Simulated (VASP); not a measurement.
# Normal strain, in-plane stress and strain energy of zinc-blende SiC under biaxial (110) strain in LDA

Silicon carbide in the zinc-blende structure joins each Si atom to four C atoms by short, strong, partly ionic bonds, which resist both stretching and bending. All members here are this one crystal, strained equally along [001] and [1-10] and left free to relax along the normal [110]. Films grown on a substrate with a different lattice constant or thermal expansion are strained in this way, and their stress and stored energy bear on bowing, cracking and the formation of defects. We calculate the normal strain, the mean in-plane stress and the strain energy with LDA for a static lattice. Strains and energies are counted from the relaxed LDA crystal. We use them to find which elastic moduli follow and where proportionality to the strain begins to fail.

## Systems and settings

The start is a typed prototype cell. The crystal was relaxed with LDA. Equal strain is imposed in the (110) plane; the strain along the normal is adjusted until the normal stress vanishes, and the atoms are relaxed with LDA. VASP 6.6.1, plane waves with PAW, cutoff 600 eV, no spin polarisation, no spin-orbit coupling, k mesh 12×12×12, static lattice.

Notes on method and selection:

- Runs that did not converge, have known faults or may not be shown are not listed, and runs on Ansatz's PAW sets soft_1 and soft_2 are kept to separate tables.

Columns:

- strain (%): strain in the plane (tension positive).
- gap (eV): band gap on the k mesh at LDA.
- normal strain (%): strain along the normal.
- stress (GPa): mean of the in-plane stresses along [001] and [1-10], tension positive.
- strain energy (meV/atom): energy per atom above the relaxed crystal.

## Results

| member | strain (%) | gap (eV) | normal strain (%) | stress (GPa) | strain energy (meV/atom) |
| --- | --- | --- | --- | --- | --- |
| −2 % | −2.0 | 1.013 | 0.695 | −12.33 | 15.63 |
| −1.5 % | −1.5 | 1.094 | 0.506 | −9.13 | 8.81 |
| −1 % | −1.0 | 1.166 | ? | ? | ? |
| −0.5 % | −0.5 | 1.232 | ? | ? | ? |
| 0 % | 0.0 | 1.289 | 0.000 | −0.01 | 0.00 |
| +0.5 % | 0.5 | 1.247 | −0.147 | 2.86 | 0.80 |
| +1 % | 1.0 | 1.206 | −0.287 | 5.63 | 3.41 |
| +1.5 % | 1.5 | 1.165 | −0.419 | 8.31 | 7.76 |
| +2 % | 2.0 | 1.127 | −0.542 | 10.90 | 13.82 |

Cells marked ? are withheld until the estimate has been made.

normal strain (%) against strain (%), members shown:

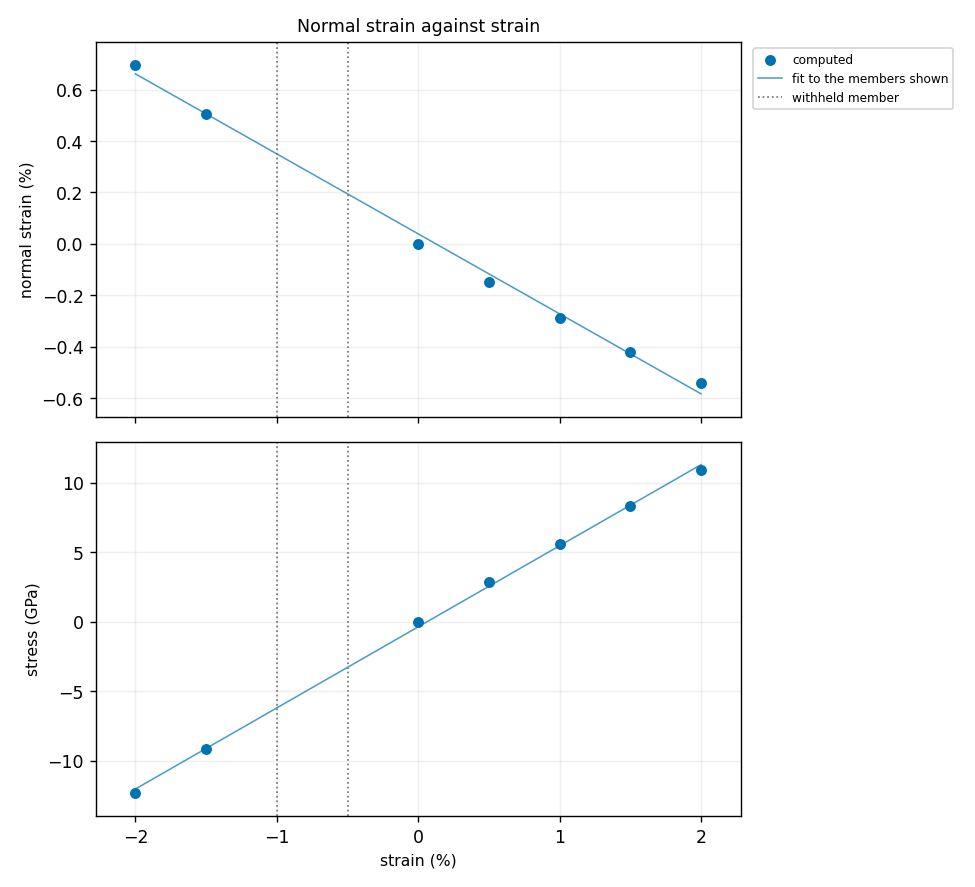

Least-squares fits to the members shown, with x = strain (%); R² and errors in the fitted variable (y, or ln y where the fit is in ln y):

| y | members | fit | R² | rms residual | leave-one-out rms | the same for the mean of the others |
| --- | --- | --- | --- | --- | --- | --- |
| normal strain (%) | 7 | y = 0.03899 − 0.3113 x | 1.00 | 0.028 | 0.043 | 0.50 |
| stress (GPa) | 7 | y = −0.3602 + 5.834 x | 1.00 | 0.27 | 0.41 | 9.4 |

## Why the values move as they do

Tension in the plane makes the crystal contract along the normal, and compression makes it expand. Between −2 % and +2 % the mean slope of the normal strain is (−0.542 − 0.695) / 4.0 = −0.309. The stress rises by (10.90 + 12.33) / 4.0 = 5.81 GPa per % of strain, a mean biaxial modulus of 5.81 × 100 = 581 GPa.

These two slopes give the bulk modulus. In a cubic crystal the sum of the three normal stresses is $3B$ times the relative volume change. With no stress along the normal, $B = 2M/[3(2-R)]$, where $M$ is the biaxial modulus and $R$ the normal contraction per unit of in-plane strain. This gives 2 × 581 / (3 × (2 − 0.309)) = 229 GPa. The three cubic constants do not follow separately, because the table gives only the mean of two unequal in-plane stresses.

The response is not strictly linear. Against 2 × 5.81 = 11.62 GPa, the stress is about 6 % too small in size at +2 % and 6 % too large at −2 %. At +0.5 % the shortfall is between 1 and 2 %. The normal strain departs more, by about 12 % at either end. Stretched bonds soften and compressed bonds stiffen, which accounts for the sign in the stress. Compression usually raises the resistance to volume change faster than the resistance to shear, so the crystal then yields more along the normal, as the table shows.

The strain energy is likewise larger under compression, 15.63 against 13.82 meV/atom at 2 %. From +0.5 % to +1 % it grows by a factor of 3.41 / 0.80 = 4.3, although softening should keep this factor below 4. A small term linear in strain is therefore present. A likely source is the finite plane-wave basis, which can place the energy minimum at a slightly larger cell than the one with zero calculated stress.

## Blind estimate

Plain estimates from the members shown:

- −0.5 %, fit at x = −0.5: 0.195 %
- −0.5 %, straight-line interpolation between −1.5 % and 0 %: w = (−0.5 − (−1.5)) / (0.0 − (−1.5)) = 0.667, so 0.506 + 0.667 × (0.000 − 0.506) = 0.169 %
- −1 %, fit at x = −1.0: 0.350 %
- −1 %, straight-line interpolation between −1.5 % and 0 %: w = (−1.0 − (−1.5)) / (0.0 − (−1.5)) = 0.333, so 0.506 + 0.333 × (0.000 − 0.506) = 0.337 %

The straight-line fit is the weaker of the two plain estimates, since it gives 0.039 % at zero strain, where the normal strain is zero by definition. Interpolation between −1.5 % and 0 % respects that point but neglects the curvature. The normal strain curves upward, so a chord lies above it.

We take the curvature from a parabola through zero and the members at −1.5 % and +1 %. The ratios of normal to in-plane strain there are 0.506 / (−1.5) = −0.3373 and −0.287, so the quadratic coefficient is (−0.287 + 0.3373) / (1.0 + 1.5) = 0.0201 per %. The chord is too high by this coefficient times the distances to its two ends. That is 0.0201 × 1.0 × 0.5 = 0.010 % for both withheld members, which gives 0.169 − 0.010 = 0.159 % at −0.5 % and 0.337 − 0.010 = 0.327 % at −1 %.

The linear coefficient of the parabola is −0.287 − 0.0201 = −0.3071. At +0.5 %, which was not used, it gives −0.3071 × 0.5 + 0.0201 × 0.5 × 0.5 = −0.1485 % against −0.147 % in the table, a miss of 0.1485 − 0.147 = 0.0015 %. If a cubic term causes it, the miss scales with the product of the distances to the three points used: 2.0 × 0.5 × 0.5 = 0.5 at +0.5 %, 1.0 × 0.5 × 1.5 = 0.75 at −0.5 % and 0.5 × 1.0 × 2.0 = 1.0 at −1 %. The errors are then 0.0015 × 0.75 / 0.5 = 0.002 % and 0.0015 × 1.0 / 0.5 = 0.003 %.

**Committed estimate, −0.5 %: normal strain = 0.159 ± 0.002 %.**  
**Committed estimate, −1 %: normal strain = 0.327 ± 0.003 %.**

## The answer

| member | strain (%) | gap (eV) | normal strain (%) | stress (GPa) | strain energy (meV/atom) |
| --- | --- | --- | --- | --- | --- |
| −1 % | −1.0 | 1.166 | 0.327 | −6.00 | 3.97 |
| −0.5 % | −0.5 | 1.232 | 0.160 | −2.96 | 1.04 |

| member | estimate | normal strain (%) | computed | estimate − computed | miss in error bars |
| --- | --- | --- | --- | --- | --- |
| −0.5 % | committed | 0.159 | 0.160 | −0.001 | 0.5 |
| −0.5 % | fit | 0.195 | 0.160 | +0.035 |  |
| −0.5 % | interpolation | 0.169 | 0.160 | +0.009 |  |
| −1 % | committed | 0.327 | 0.327 | 0.000 | 0.0 |
| −1 % | fit | 0.350 | 0.327 | +0.023 |  |
| −1 % | interpolation | 0.337 | 0.327 | +0.010 |  |

normal strain (%) against strain (%):

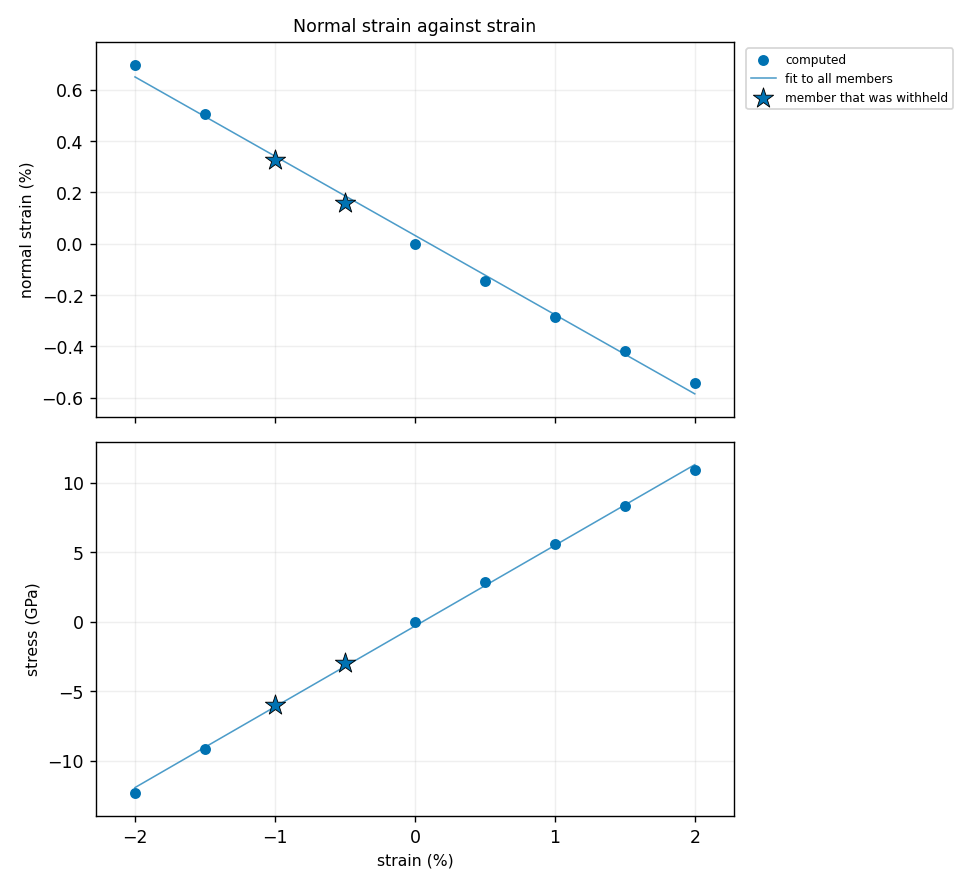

Both estimates fall inside their error bars. At −0.5 % we gave 0.159 % against a computed 0.160 %, and at −1 % the two agree at 0.327 %. Interpolation was too high by 0.009 and 0.010 %, close to the 0.010 % we had subtracted for curvature, and the straight-line fit missed by 0.035 and 0.023 %. The expected growth of the error from −0.5 % to −1 % did not appear, but both misses are at the level of the printed rounding.

The new stresses show how much each kind of elastic resistance changes. Per unit of in-plane strain the stress is 6.00 × 100 = 600 GPa at −1 % and 5.63 × 100 = 563 GPa at +1 %. With the formula used above, the resistance to volume change is 2 × 600 / (3 × (2 − 0.327)) = 239 GPa at −1 % and 2 × 563 / (3 × (2 − 0.287)) = 219 GPa at +1 %. The resistance to change of shape, taken as the in-plane stress divided by the difference between in-plane and normal strain, is 600 / (1 + 0.327) = 452 GPa and 563 / (1 + 0.287) = 437 GPa. From +1 % to −1 % the first thus rises by 9 % and the second by 3 %. That the first rises faster is no independent test of the mechanism, because the ratio of the two follows from the normal strain alone. What the stresses add is that both rise, and by how much.

## Exceptions

Least-squares fits to the whole series, with x = strain (%); R² and errors in the fitted variable (y, or ln y where the fit is in ln y):

| y | members | fit | R² | rms residual | leave-one-out rms | the same for the mean of the others |
| --- | --- | --- | --- | --- | --- | --- |
| normal strain (%) | 9 | y = 0.03256 − 0.3086 x | 1.00 | 0.028 | 0.039 | 0.45 |
| stress (GPa) | 9 | y = −0.3033 + 5.811 x | 1.00 | 0.26 | 0.37 | 8.4 |

Largest departures from the fit to the whole series:

| member | normal strain (%) | fit | computed − fit | in rms residuals |
| --- | --- | --- | --- | --- |
| −2 % | 0.695 | 0.650 | +0.045 | 1.6 |
| +2 % | −0.542 | −0.585 | +0.043 | 1.5 |
| 0 % | 0.000 | 0.033 | −0.033 | 1.2 |
| −0.5 % | 0.160 | 0.187 | −0.027 | 1.0 |

The largest departures from the straight line are those of a smooth curve. Both ends lie above it, by 0.045 % at −2 % and 0.043 % at +2 %, while the members at 0 % and −0.5 % lie below it by 0.033 and 0.027 %. The parabola used for the estimate removes nearly all of this. Its largest miss is at +2 %, where it gives −0.3071 × 2 + 0.0201 × 4 = −0.534 % against −0.542 %, probably because terms of higher order begin to count.

The strain energy has an oddity at small strain. Compression costs more than tension by a factor of 15.63 / 13.82 = 1.13 at 2 %, but by 1.04 / 0.80 = 1.30 at 0.5 %. Anharmonic bonds alone would bring this factor closer to 1 as the strain shrinks. The finite basis would account for the sign: at a fixed cutoff a larger cell holds more plane waves, which slightly lowers the energy under tension. Averaging each pair of opposite strains cancels the term, and the energy then grows from (0.80 + 1.04) / 2 = 0.92 meV/atom at 0.5 % to (3.41 + 3.97) / 2 = 3.69 meV/atom at 1 %, the factor of 4 expected of a linear solid.

## Closing remarks

Between −2 % and +2 % the normal strain follows the same parabola, with rounded coefficients, $\varepsilon_n = -0.307\,\varepsilon + 0.020\,\varepsilon^2$, with both strains in %. The typical miss is 0.003 %, against 0.028 % for the straight line, so a further member inside this range can be estimated to better than about 0.01 %, least closely near +2 %.

Near zero strain the biaxial modulus is (2.86 + 2.96) / 1.0 = 5.82 GPa per %, or 5.82 × 100 = 582 GPa. A film under 0.2 % tension would therefore carry a mean stress of 0.2 × 5.82 = 1.2 GPa. Proportionality holds to about 3 % for the stress and 7 % for the normal strain at a strain of 1 %, and the departures double at 2 %.

All values are for a static lattice. Zero-point and thermal motion would lower the moduli by roughly a few per cent at room temperature.
